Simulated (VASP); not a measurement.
# Biaxial (001) strain of bcc tungsten from −2 % to +2 % with PBEsol: elastic moduli and the limit of linear elasticity

Calculated are the normal strain, the in-plane stress and the strain energy of bulk W under equal strain along both axes of the (001) plane, with the normal stress relaxed to zero. Strains and energies are measured against the crystal relaxed with PBEsol; tension is positive.

Problem: a tungsten (001) film 10 nm thick is to serve as a tensile stressor layer. It must pull with at least 25 N/m per unit width and store at most 1 J/m² of elastic energy. Its stress must also lie within 5 % of the linear law, so that strain can be converted to stress with one modulus. Among the strains that pass, the one with the least stored energy is preferred. Which tabulated strain should be chosen, and which moduli describe the film?

## Systems and settings

The start is an entry of the ASE's table of reference states database. The crystal was relaxed with PBEsol. Equal strain is imposed in the (001) plane; the strain along the normal is adjusted until the normal stress vanishes, and the atoms are relaxed with PBEsol. VASP 6.6.1, plane waves with PAW, cutoff 450 eV, no spin polarisation, no spin-orbit coupling, k mesh 26×26×26, static lattice. The same in all rows: band gap on the k mesh at PBEsol: 0.000 eV.

Notes on method and selection:

- Runs that did not converge, have known faults or may not be shown are not listed, and runs on Ansatz's PAW sets soft_1 and soft_2 are kept to separate tables.

Columns:

- strain (%): strain in the plane (tension positive).
- normal strain (%): strain along the normal.
- stress (GPa): in-plane stress, tension positive.
- strain energy (meV/atom): energy per atom above the relaxed crystal.

Input lines of one member:

```
PREC = Accurate
ENCUT = 450
EDIFF = 1E-07
NELM = 120
ISMEAR = 1
SIGMA = 0.15
LREAL = .FALSE.
ALGO = Normal
GGA = PS
NBANDS = 13
LASPH = .TRUE.
LORBIT = 11
KPAR = 2
IBRION = 1
NSW = 25
```

Command (options for logging and memory left out): `mpirun -np 2 vasp_std`

## Numbers

| member | strain (%) | normal strain (%) | stress (GPa) | strain energy (meV/atom) |
| --- | --- | --- | --- | --- |
| −2 % | −2.0 | 1.667 | −12.71 | 24.63 |
| −1.5 % | −1.5 | 1.223 | −9.42 | 13.71 |
| −1 % | −1.0 | 0.804 | −6.16 | 6.039 |
| −0.5 % | −0.5 | 0.400 | −3.01 | 1.540 |
| 0 % | 0.0 | 0.000 | 0.00 | 0.03418 |
| +0.5 % | 0.5 | −0.390 | 2.88 | 1.404 |
| +1 % | 1.0 | −0.779 | 5.63 | 5.518 |
| +1.5 % | 1.5 | −1.155 | 8.31 | 12.28 |
| +2 % | 2.0 | −1.515 | 10.94 | 21.64 |

normal strain (%) against strain (%):

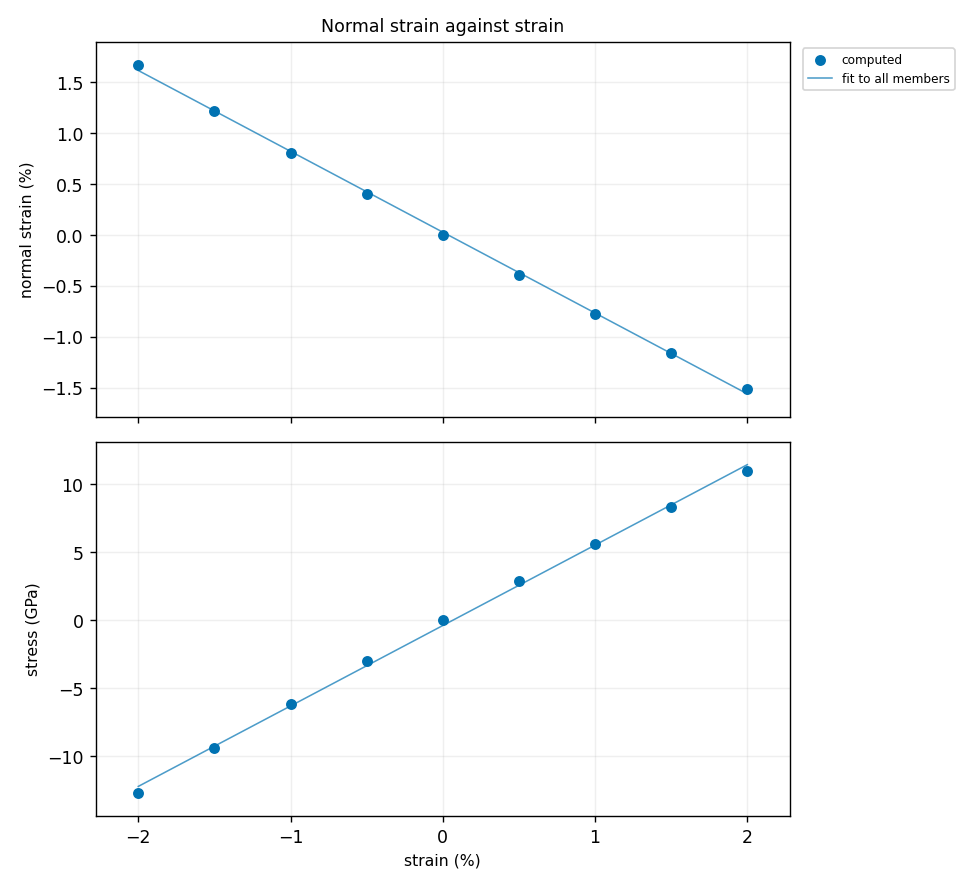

Least-squares fits to the whole series, with x = strain (%); R² and errors in the fitted variable (y, or ln y where the fit is in ln y):

| y | members | fit | R² | rms residual | leave-one-out rms | the same for the mean of the others |
| --- | --- | --- | --- | --- | --- | --- |
| normal strain (%) | 9 | y = 0.02833 − 0.7939 x | 1.00 | 0.028 | 0.041 | 1.2 |
| stress (GPa) | 9 | y = −0.3933 + 5.909 x | 1.00 | 0.32 | 0.46 | 8.6 |

## Reading the trend

Stretching the plane thins the crystal along its normal. From the rows at ±0.5 %, the normal strain changes by −(0.390 + 0.400) / 1.0 = −0.790 per unit of in-plane strain, and the stress by (2.88 + 3.01) / 1.0 = 5.89 GPa per %. Per unit of strain this is the biaxial modulus, M = 5.89 / 0.01 = 589 GPa.

For a cubic crystal with no normal stress, the first slope is −2 C₁₂/C₁₁ and M = C₁₁ + C₁₂ − 2 C₁₂²/C₁₁. Hence C₁₂/C₁₁ = 0.790 / 2 = 0.395, C₁₁ = 589 / (1 + 0.395 − 2 × 0.395²) = 544 GPa and C₁₂ = 0.395 × 544 = 215 GPa. The bulk modulus is (544 + 2 × 215) / 3 = 325 GPa. Poisson's ratio for a pull along [001] is 0.395 / (1 + 0.395) = 0.283, and Young's modulus is 589 × (1 − 0.283) = 422 GPa. The shear modulus C₄₄ does not enter this deformation.

The normal strain offsets only part of the area change: constant volume would need a slope of −2. Tension therefore lengthens the eight nearest-neighbour bonds and compression shortens them. Bonds stiffen when shortened and soften when stretched, so the stress per % of strain falls from 12.71 / 2 = 6.36 GPa at −2 % to 10.94 / 2 = 5.47 GPa at +2 %.

With x the strain in %, the rounded quadratic fit σ = 5.91 x − 0.23 x² (GPa) reproduces the nine stresses with an rms miss of 0.03 GPa, against 0.32 GPa for the straight line. The linear law with 5.89 GPa per % is off by about 2 % at ±0.5 %, 4 to 5 % at ±1 % and 7 to 8 % at ±2 %.

## Departures from the trend

Largest departures from the fit to the whole series:

| member | normal strain (%) | fit | computed − fit | in rms residuals |
| --- | --- | --- | --- | --- |
| −2 % | 1.667 | 1.616 | +0.051 | 1.8 |
| +2 % | −1.515 | −1.559 | +0.044 | 1.6 |
| 0 % | 0.000 | 0.028 | −0.028 | 1.0 |
| −0.5 % | 0.400 | 0.425 | −0.025 | 0.9 |

The largest departures from the straight line for the normal strain are +0.051 at −2 % and +0.044 at +2 %, with negative ones near zero strain. That pattern is curvature, not a faulty run. The fitted stress of −0.3933 GPa at zero strain has the same origin; the row itself gives 0.00.

The energy of 0.03418 meV/atom at 0 % is a numerical offset. A real misfit storing that much would be about 0.08 % of strain and would show a stress near 0.5 GPa. The likely source is the plane-wave set, which in a variable-cell relaxation stays that of the starting cell.

The energies at ±0.5 % differ by 1.540 − 1.404 = 0.136 meV/atom, whereas cubic scaling of the difference at ±2 % gives (24.63 − 21.64) / 64 = 0.047. The excess probably comes from the fixed cutoff, which admits more plane waves in a larger cell and so slightly favours tension. Averaging the two signs of strain removes this slope.

## Selection

The force per width is F = σ t and the stored energy per area is w = σ ε t, with ε the strain as a fraction and t = 10 nm. The two in-plane directions each contribute ½ σ ε. Conveniently, 1 GPa × 1 nm = 1 N/m = 1 J/m².

The four compressed rows push instead of pulling, and the unstrained row exerts no force. Four rows remain:

- +0.5 %: F = 2.88 × 10 = 28.8 N/m, w = 28.8 × 0.005 = 0.144 J/m², stress 1 − 2.88 / (5.89 × 0.5) = 2.2 % below the linear law. It passes.
- +1 %: F = 5.63 × 10 = 56.3 N/m, w = 56.3 × 0.01 = 0.563 J/m², stress 1 − 5.63 / 5.89 = 4.4 % below. It passes.
- +1.5 %: F = 8.31 × 10 = 83.1 N/m, w = 83.1 × 0.015 = 1.25 J/m², stress 1 − 8.31 / (5.89 × 1.5) = 5.9 % below. It fails on energy and on linearity.
- +2 %: F = 10.94 × 10 = 109.4 N/m, w = 109.4 × 0.02 = 2.19 J/m², stress 1 − 10.94 / (5.89 × 2) = 7.1 % below. It fails on both.

The energy column provides a check. The mean of the energies at ±1 %, less the offset at 0 %, is (6.039 + 5.518) / 2 − 0.034 = 5.744 meV/atom. The linear energy density is 589 × 0.01² = 0.0589 GPa. With 1 eV/Å³ = 160.2 GPa, their ratio is 5.744 / 1000 × 160.2 / 0.0589 = 15.6 Å³ per atom, close to the rough 16 Å³ that a tungsten atom occupies. Stress and energy therefore agree.

The pick is +0.5 %, which stores about a quarter of the energy of the runner-up, +1 %. Elastic constants of transition metals from PBEsol are typically wrong by up to roughly 10 %, more often too stiff. A stress 10 % lower would leave 28.8 × 0.90 = 25.9 N/m, still enough.

The pick is overturned if the film loses more than 1 − 25 / 28.8 = 13 % of its stress, through a softer lattice or partial relaxation of the strain. The runner-up can lose 1 − 25 / 56.3 = 56 % before it fails on force, so it is the safer choice where relaxation is expected.

## Conclusions and limits

Within ±1 %, one biaxial modulus of 589 GPa gives the stress to better than 5 %. Out to ±2 %, the quadratic term is needed: the linear law underestimates the magnitude of the stress in compression and overestimates it in tension.

The largest omitted effect is plastic relaxation. The calculated crystal is free of defects, while dislocations in a real film can remove most of a stress of several GPa, an effect as large as the tabulated stresses themselves. Thermal softening also lowers the stress, but only by roughly 1 to 2 % up to room temperature, less than the nonlinearity at ±1 %. Surface and interface stresses are left out too; in so thin a film they also change the force per width, which matters for the narrow margin of the pick.

[Logs are printed without paths, hosts, clocks, repeated set-up lines and the standing remarks that a program may print on its own settings, such as how far it seeks lower states.]
